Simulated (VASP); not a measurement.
# Bulk modulus and pressure derivative of NbP (I4_1md) from stress and from energy at PBEsol

A thin NbP conductor enclosed in a chip is squeezed or stretched when its surroundings expand differently, and a stress model then needs to know how strongly the crystal resists a change of volume. The same number converts a measured volume into a pressure in a high-pressure cell.

Problem: find the bulk modulus B0 and its pressure derivative B0′ for NbP from seven PBEsol runs on uniformly scaled cells, once from the energies and once from the stress-tensor pressures. Eulerian strain f is counted from the fitted volume V0 = 15.5616 Å³ per atom, with compression positive. Energies are per atom above the lowest point. The two routes are compared with each other; a measured modulus is not compared here.

## Computational details

One crystal, NbP (I4_1md, 4 atoms) (known phase), at PBEsol: single-point runs on uniformly scaled copies of a cell relaxed at PBEsol; symmetry leaves the fractional positions and the cell shape free, held here. Program: VASP 6.6.1, plane waves and PAW (data sets made for PBE of release 64), scalar-relativistic without spin-orbit coupling, no spin polarisation. Cutoff 400 eV; on the k meshes the divisions times the cell-vector length are 53 Å or more. Occupations: Gaussian smearing of 0.05 eV.

Notes on method and selection:

- Third-order Birch-Murnaghan: P = 3·B0·f·(1 + 2f)^(5/2)·[1 + (3/2)(B0′ − 4)·f]. The fit to the energies of these runs gives B0 = 205.4 GPa and B0′ = 4.26.
- Static lattice. The pressure from the stress tensor and the slope of the energy need not agree exactly at a finite cutoff and mesh.
- With the fractional positions and the cell shape held the modulus is an upper bound.
- A measured value is attached only where its sources agree among themselves; tables made before the last selection also left out values far from the computed one, as likely another phase or mode.
- Series whose points a third-order Birch-Murnaghan form does not fit, or whose B0′ lies outside 2 to 8, were left out.
- Crystals whose pressure at the fitted V0 departs from zero by more than 0.6 % of B0 plus 0.1 GPa, and layered compounds, were left out.
- Runs that did not converge, have known faults or may not be shown are not listed, and runs on Ansatz's PAW sets soft_1 and soft_2 are kept to separate tables.

Columns:

- Eulerian strain: Eulerian strain f = ½[(V0/V)^(2/3) − 1] with the fitted V0 = 15.5616 Å³ per atom, compression positive.
- fitted bulk modulus (GPa): bulk modulus at that volume from the third-order Birch-Murnaghan fit to the energies.
- volume (Å³): volume per atom.
- pressure (GPa): pressure from the stress tensor, compression positive.
- energy (meV/atom): energy per atom above the lowest point, extrapolated to zero smearing.

## Data

| member | Eulerian strain | fitted bulk modulus (GPa) | volume (Å³) | pressure (GPa) | energy (meV/atom) |
| --- | --- | --- | --- | --- | --- |
| V = 16.461 Å³ | −0.01839 | 160.5 | 16.4614 | −10.64 | 30.17 |
| V = 16.151 Å³ | −0.01224 | 174.8 | 16.1508 | −7.48 | 13.35 |
| V = 15.840 Å³ | −0.00588 | 190.3 | 15.8402 | −3.97 | 3.05 |
| V = 15.530 Å³ | 0.00069 | 207.2 | 15.5297 | −0.05 | 0.00 |
| V = 15.219 Å³ | 0.00747 | 225.6 | 15.2191 | 4.30 | 4.97 |
| V = 14.908 Å³ | 0.01450 | 245.7 | 14.9085 | 9.13 | 18.89 |
| V = 14.598 Å³ | 0.02177 | 267.6 | 14.5979 | 14.50 | 42.75 |

pressure (GPa) against Eulerian strain:

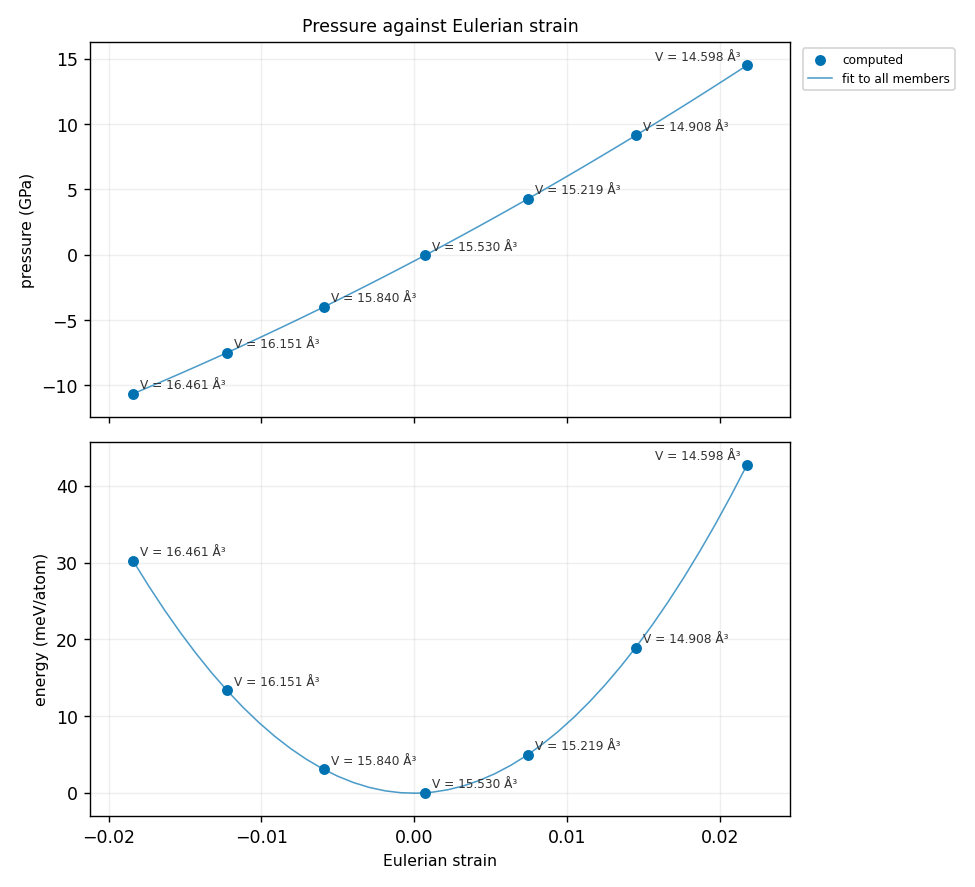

Least-squares fits to the whole series, with x = Eulerian strain; R² and errors in the fitted variable (y, or ln y where the fit is in ln y):

| y | members | fit | R² | rms residual | leave-one-out rms | the same for the mean of the others |
| --- | --- | --- | --- | --- | --- | --- |
| pressure (GPa) | 7 | y = −0.47579 + 614.27 x + 3369.2 x² | 1.00 | 0.0063 | 0.017 | 9.8 |
| energy (meV/atom) | 7 | y = −0.061627 + 7.2258 x + 89905 x² | 1.00 | 0.041 | 0.11 | 17 |

## Mechanism

**From the energy.** The Birch-Murnaghan energy is E = E0 + (9/2)·V0·B0·f²·[1 + (B0′ − 4)·f], so (E − E0)/f² is a straight line in f. The lowest point lies slightly off V0, by f = 0.00069, which puts E0 at −89905 × 0.00069² = −0.04 meV/atom. The two end points then give

- (42.75 + 0.04) / 0.02177² = 90287 meV/atom
- (30.17 + 0.04) / 0.01839² = 89328 meV/atom

The slope is (90287 − 89328) / (0.02177 + 0.01839) = 23879 and the value at f = 0 is 89328 + 23879 × 0.01839 = 89767 meV/atom. Hence B0′ = 4 + 23879 / 89767 = 4.27. With 1 eV/Å³ = 160.2 GPa, B0 = 2 × (89767 / 1000) / (9 × 15.5616) × 160.2 = 205.4 GPa. The full fit gives 205.4 GPa and 4.26.

**From the pressure.** For small f the pressure is 3·B0·f + 3·B0·[5 + (3/2)(B0′ − 4)]·f². The fitted parabola therefore gives B0 = 614.27 / 3 = 204.8 GPa at the same V0. The ratio 3369.2 / 614.27 = 5.485 gives B0′ = 4 + (5.485 − 5) / 1.5 = 4.32. The two routes agree to about 0.3 % in B0 and 0.06 in B0′. Part of the agreement in B0 is luck: the parabola leaves out the cubic term in f, and its slope absorbs some of it, which raises this B0 by roughly 0.6 GPa.

**Why the crystal stiffens.** Equal volume steps cost more pressure as the cell shrinks: 3.16 GPa for the first step from the expanded end and 5.37 GPa for the last. As the Nb–P bonds shorten, the repulsion between overlapping shells and the kinetic energy of the confined electrons rise faster than the bonding energy gained. A B0′ of 4 would make the energy purely quadratic in f; the small excess over 4 makes the compressed side slightly steeper.

## Residuals

Largest departures from the fit to the whole series:

| member | pressure (GPa) | fit | computed − fit | in rms residuals |
| --- | --- | --- | --- | --- |
| V = 16.151 Å³ | −7.48 | −7.49 | +0.01 | 1.5 |
| V = 14.908 Å³ | 9.13 | 9.14 | −0.01 | 1.5 |
| V = 16.461 Å³ | −10.64 | −10.63 | −0.01 | 1.1 |
| V = 14.598 Å³ | 14.50 | 14.49 | +0.01 | 1.0 |

The departures from the pressure fit reach only 0.01 GPa. Their signs are those of the cubic term in f that a parabola leaves out, so they point to the form of the fit and not to a change in the crystal. The discrepancy that matters is shared by all seven members: the stress-tensor pressure lies below the pressure implied by the energies. At V0 the pressure fit gives −0.48 GPa instead of zero. The Birch-Murnaghan form with the energy-fit constants, where (3/2)(B0′ − 4) = 1.5 × 0.26 = 0.39, gives for the two end volumes

- most expanded: 3 × 205.4 × (−0.01839) × (1 − 2 × 0.01839)^(5/2) × (1 − 0.39 × 0.01839) = −10.24 GPa
- most compressed: 3 × 205.4 × 0.02177 × (1 + 2 × 0.02177)^(5/2) × (1 + 0.39 × 0.02177) = 15.05 GPa

The stress minus these values is −10.64 + 10.24 = −0.40 GPa at the expanded end and 14.50 − 15.05 = −0.55 GPa at the compressed end, so the gap grows in size on compression.

Its sign is that of Pulay stress, the likely cause; repeating the runs at a higher cutoff would test this, since the gap should then shrink. The stress is evaluated with a fixed set of plane waves, whose effective cutoff rises as the cell shrinks. The incomplete basis then improves on contraction, which adds a spurious inward pull.

At the most compressed volumes the k mesh also shows a small gap, although the crystal is metallic at the others. NbP is a semimetal whose bands, without spin-orbit coupling, cross along closed lines in k space, which a regular mesh can miss. The gap is narrower than the smearing and leaves no visible step in the pressures.

## Short exercises

**What pressure reduces the volume by 4 % from V0?**

The strain is f = 0.5 × (0.96^(−2/3) − 1) = 0.01379. With the energy-fit constants, P = 3 × 205.4 × 0.01379 × (1 + 2 × 0.01379)^(5/2) × (1 + 0.39 × 0.01379) = 9.1 GPa, where 1.5 × 0.26 = 0.39 is the factor (3/2)(B0′ − 4). The linear estimate, B0 times the relative change of volume, gives 205.4 × 0.04 = 8.2 GPa, about 10 % too low, because the pressure curve steepens on compression.

**How far do the results move if V0 is taken where the stress-tensor pressure vanishes?**

The pressure parabola crosses zero at f = 0.00077. The volume is smaller by a fraction of about 3 × 0.00077 = 0.0023, which is 0.0023 × 15.5616 = 0.036 Å³ per atom. The modulus there is (1 + 2f)/3 times the slope of the parabola: (1 + 2 × 0.00077) × (614.27 + 2 × 3369.2 × 0.00077) / 3 = 206.8 GPa. This is 2.0 GPa above the 204.8 GPa found at the energy minimum, so a quoted modulus should name its reference volume.

**Is B0′ = 4 accurate enough up to the highest compression?**

Setting B0′ to 4 while keeping B0 removes the factor 1 + 0.39 × 0.02177 = 1.0085. The pressure of 15.05 GPa falls by about 0.13 GPa, or 0.8 %. That is less than the gap between the two routes at the same volume, so the simpler form suffices for most engineering estimates.

## Closing remarks

Between 14.598 and 16.461 Å³ per atom, NbP at PBEsol is described by B0 of about 205 GPa and B0′ of about 4.3. The energy route is the safer one for V0, since the offset in the stress, probably Pulay stress, shifts the volume at which the pressure vanishes.

The modulus is an upper bound, because atomic positions and cell shape were held. Under compression the stress is larger across the tetragonal axis than along it, so a freed cell would tend to lower its c/a ratio and respond more softly. Zero-point motion and temperature, absent from a static lattice, would expand the crystal and lower the modulus further.

Series with a poor Birch-Murnaghan fit or a large residual pressure at V0 were left out of the selection. The close agreement found here therefore says little about how often the two routes agree in other crystals.
